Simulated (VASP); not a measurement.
# Smearing width and scheme for metallic SnBr3 (P6_3/mmc) at r2SCAN: drift of free energy, extrapolated energy, pressure and forces

Widening the smearing of metallic SnBr3 to 0.5 eV lowers the free energy by 47 meV/atom in the Gaussian scheme and by only 0.6 meV/atom in the Methfessel-Paxton scheme, yet the forces on the atoms change by about the same amount in both. An energy that hardly moves is therefore no guarantee that the forces are right.

The brief is to find the widest smearing that can be used to relax the atoms of this crystal, taken as a model conducting contact layer, in a fixed cell on the 4×4×4 mesh. The limits chosen are 1 meV/atom for both the free and the extrapolated energy, 20 MPa for the pressure and 3 meV/Å for the forces. All errors are measured against the Gaussian run at 0.01 eV.

## Calculations

One crystal without a Kohn-Sham gap, SnBr3 (P6_3/mmc, 8 atoms) (hypothetical: elements swapped on a known structure), at r2SCAN; single-point runs at fixed cell and atoms on one k mesh (4×4×4), only the smearing changed. Program: VASP 6.6.1, plane waves and PAW (data sets made for PBE of release 64), scalar-relativistic without spin-orbit coupling, no spin polarisation. Cutoff 400 eV; on the k meshes the divisions times the cell-vector length are 23 Å or more.

Notes on method and selection:

- For Gaussian or Fermi-Dirac smearing the free energy falls as σ² times the density of states at the Fermi level; Methfessel-Paxton schemes cancel the leading order.
- At the smallest widths the mesh is too coarse for the step in the occupations, so the reference carries its own sampling error.
- Runs that did not converge, have known faults or may not be shown are not listed, and runs on Ansatz's PAW sets soft_1 and soft_2 are kept to separate tables.

Columns:

- width (eV): smearing width SIGMA.
- free-energy error (meV/atom): free energy per atom minus that of the run with Gaussian smearing of 0.01 eV.
- energy error (meV/atom): energy per atom, extrapolated to zero smearing as the program prints it, minus that of the run with Gaussian smearing of 0.01 eV.
- pressure error (GPa): pressure minus that of the run with Gaussian smearing of 0.01 eV, compression positive.
- force error (meV/Å): largest difference of the force on an atom against the run with Gaussian smearing of 0.01 eV.
- smearing term (meV/atom): free energy minus the extrapolated energy, per atom.

Input lines of one member:

```
PREC = Accurate
ENCUT = 400
EDIFF = 1E-06
NELM = 100
ISMEAR = 0
SIGMA = 0.01
LREAL = .FALSE.
ALGO = Normal
METAGGA = R2SCAN
LASPH = .TRUE.
NBANDS = 43
LORBIT = 11
ISIF = 2
```

Command (options for logging and memory left out): `vasp_std`

## The series

| member | scheme | width (eV) | free-energy error (meV/atom) | energy error (meV/atom) | pressure error (GPa) | force error (meV/Å) | smearing term (meV/atom) |
| --- | --- | --- | --- | --- | --- | --- | --- |
| σ = 0.01 eV | Gaussian | 0.01 | 0.000 | 0.000 | 0.00000 | 0.00 | −0.049 |
| σ = 0.05 eV | Gaussian | 0.05 | −0.649 | −0.206 | 0.00511 | 0.41 | −0.492 |
| σ = 0.1 eV | Gaussian | 0.10 | −2.066 | −0.207 | 0.02172 | 2.18 | −1.909 |
| σ = 0.2 eV | Gaussian | 0.20 | −8.091 | 0.028 | 0.09612 | 11.43 | −8.168 |
| σ = 0.5 eV | Gaussian | 0.50 | −47.113 | −4.787 | 0.39681 | 21.51 | −42.375 |
| σ = 0.01 eV | Methfessel-Paxton, second order | 0.01 | 0.048 | −0.006 | −0.00240 | 0.34 | 0.005 |
| σ = 0.05 eV | Methfessel-Paxton, second order | 0.05 | −0.068 | −0.055 | 0.00293 | 0.53 | −0.062 |
| σ = 0.1 eV | Methfessel-Paxton, second order | 0.10 | −0.205 | −0.235 | −0.00041 | 1.57 | −0.019 |
| σ = 0.2 eV | Methfessel-Paxton, second order | 0.20 | 0.130 | −0.134 | −0.00719 | 0.47 | 0.215 |
| σ = 0.5 eV | Methfessel-Paxton, second order | 0.50 | −0.593 | −0.358 | 0.03302 | 22.30 | −0.284 |

free-energy error (meV/atom) against width (eV):

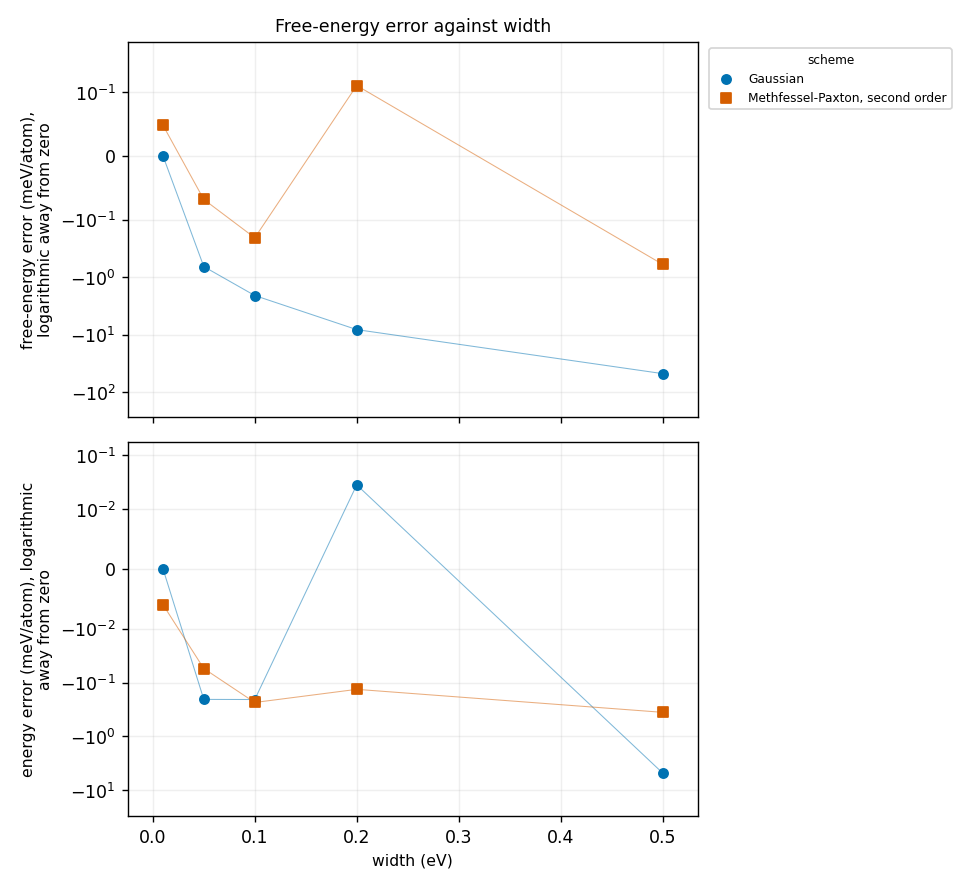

## The trend and its physics

In the Gaussian scheme the free energy falls at every step, close to quadratically. To leading order

$$F-E_0=-\tfrac14 D\,\sigma^2,$$

where $E_0$ is the energy at zero smearing, $D$ the density of states at the Fermi level (both spins) and $\sigma$ the width. The smearing term divided by $\sigma^2$ is nearly constant from 0.05 to 0.2 eV:

0.492 / 0.05² = 197, 1.909 / 0.1² = 191 and 8.168 / 0.2² = 204, all in meV/atom per eV².

The run at 0.1 eV gives $D$ = 4 × 1.909 / (1000 × 0.1²) = 0.764 states per eV and atom. At 0.5 eV the quotient drops to 42.375 / 0.5² = 170, because the density of states is not constant over so wide a window.

The extrapolated energy has the quadratic term removed. It stays within 0.21 meV/atom of the reference up to 0.2 eV, then falls to −4.787 meV/atom at 0.5 eV, where higher orders matter.

The pressure gets no such correction, since stress and forces are derivatives of the free energy. Its Gaussian error rises at every step, by 0.02172 / 0.1² = 2.17 and 0.09612 / 0.2² = 2.40 GPa per eV². The positive sign is what the formula gives if $D$ grows as the cell expands and the bands narrow; the cell was held fixed, so this remains an inference.

Second-order Methfessel-Paxton smearing cancels the quadratic term in the free energy itself, and with it the matching part of the pressure. Up to 0.2 eV its free-energy error stays within 0.21 meV/atom and its pressure error within 0.0072 GPa. Both change sign along the series, so no power of $\sigma$ describes them. At 0.2 eV the Gaussian pressure error is 0.09612 / 0.00719 = 13.4 times larger.

## Outliers

The Methfessel-Paxton run at 0.5 eV is the deceptive one. Its free energy is off by only −0.593 meV/atom, but its force error is 22.30 meV/Å, and the forces on the bromine atoms have reversed direction. The Gaussian run at 0.5 eV shows the same reversal. In both, the in-plane and axial stresses shift in opposite directions, so the pressure error understates the change in stress. Neither run is fit for relaxation.

The Gaussian run at 0.2 eV has an extrapolated energy only 0.028 meV/atom from the reference. This is a crossing between negative errors at 0.1 and 0.5 eV, not convergence: its force error is 11.43 meV/Å, enough to reverse the small bromine forces already.

The reference is itself imperfect. Its smearing term gives 0.049 / 0.01² = 490 meV/atom per eV², well above the 191 found at 0.1 eV, a sign that the mesh is too coarse for so sharp a step in the occupations.

## Selection

Energies are converted to the cell of 8 atoms by $\Delta F_\text{cell}=8\,\Delta F_\text{atom}$, and the pressure limit of 20 MPa is 0.02 GPa. The energy limit of 1 meV/atom is then 8 meV per cell.

Four of the nine candidate runs fail:

- Gaussian, 0.1 eV: free energy (−2.066 meV/atom) and, narrowly, pressure (0.02172 GPa).
- Gaussian, 0.2 eV: free energy, pressure and forces.
- Gaussian, 0.5 eV: all four limits.
- Methfessel-Paxton, 0.5 eV: pressure (0.03302 GPa) and forces, although both energies pass.

Five runs pass: Gaussian at 0.05 eV and Methfessel-Paxton at 0.01, 0.05, 0.1 and 0.2 eV. The widest is Methfessel-Paxton at 0.2 eV, with a free-energy error of 8 × 0.130 = 1.04 meV per cell, a pressure error of −0.00719 GPa and a force error of 0.47 meV/Å.

The error of r2SCAN against experiment does not enter, because every run is compared with the same functional. The uncertainty of the reference does. Part of it shows in the difference between the two schemes at 0.01 eV: 0.048 meV/atom in free energy, 0.00240 GPa and 0.34 meV/Å. Added to the errors of the widest passing run, this gives 0.130 + 0.048 = 0.178 meV/atom, 0.00719 + 0.00240 = 0.00959 GPa and 0.47 + 0.34 = 0.81 meV/Å, all inside the limits. A mesh error common to both schemes is not covered by this margin.

The pick is Methfessel-Paxton at 0.2 eV, and the runner-up is the same scheme at 0.1 eV. The runner-up has the larger force error, 1.57 meV/Å, so the small value at 0.2 eV probably owes something to cancellation.

Relaxing the cell shape would overturn the pick. In the Methfessel-Paxton run at 0.2 eV the in-plane and axial stresses shift in opposite directions, each by several times the pressure error. If the 20 MPa limit applied to each stress component, the Methfessel-Paxton runs at 0.2 and 0.1 eV would both fail, and the widest width left would be 0.05 eV, in either scheme.

## Conclusions

For this crystal and mesh, Gaussian smearing up to 0.2 eV gives a usable extrapolated energy, but its forces pass only up to 0.1 eV, and its free energy and pressure only up to 0.05 eV. Methfessel-Paxton smearing keeps energies and pressure close to the reference up to 0.2 eV. One further smearing run on this crystal is not listed, so the selection holds among the runs shown.

Two omitted effects probably exceed the spread among the accepted runs. Tin in a formal +3 state tends to split into +2 and +4 sites or to form pairs; such a distortion would lower the energy by roughly tens of meV/atom and could open a gap. Dispersion forces would also lower the energy, and would shift the pressure downwards by roughly some tenths of a GPa.

[Logs are printed without paths, hosts, clocks, repeated set-up lines and the standing remarks that a program may print on its own settings, such as how far it seeks lower states.]
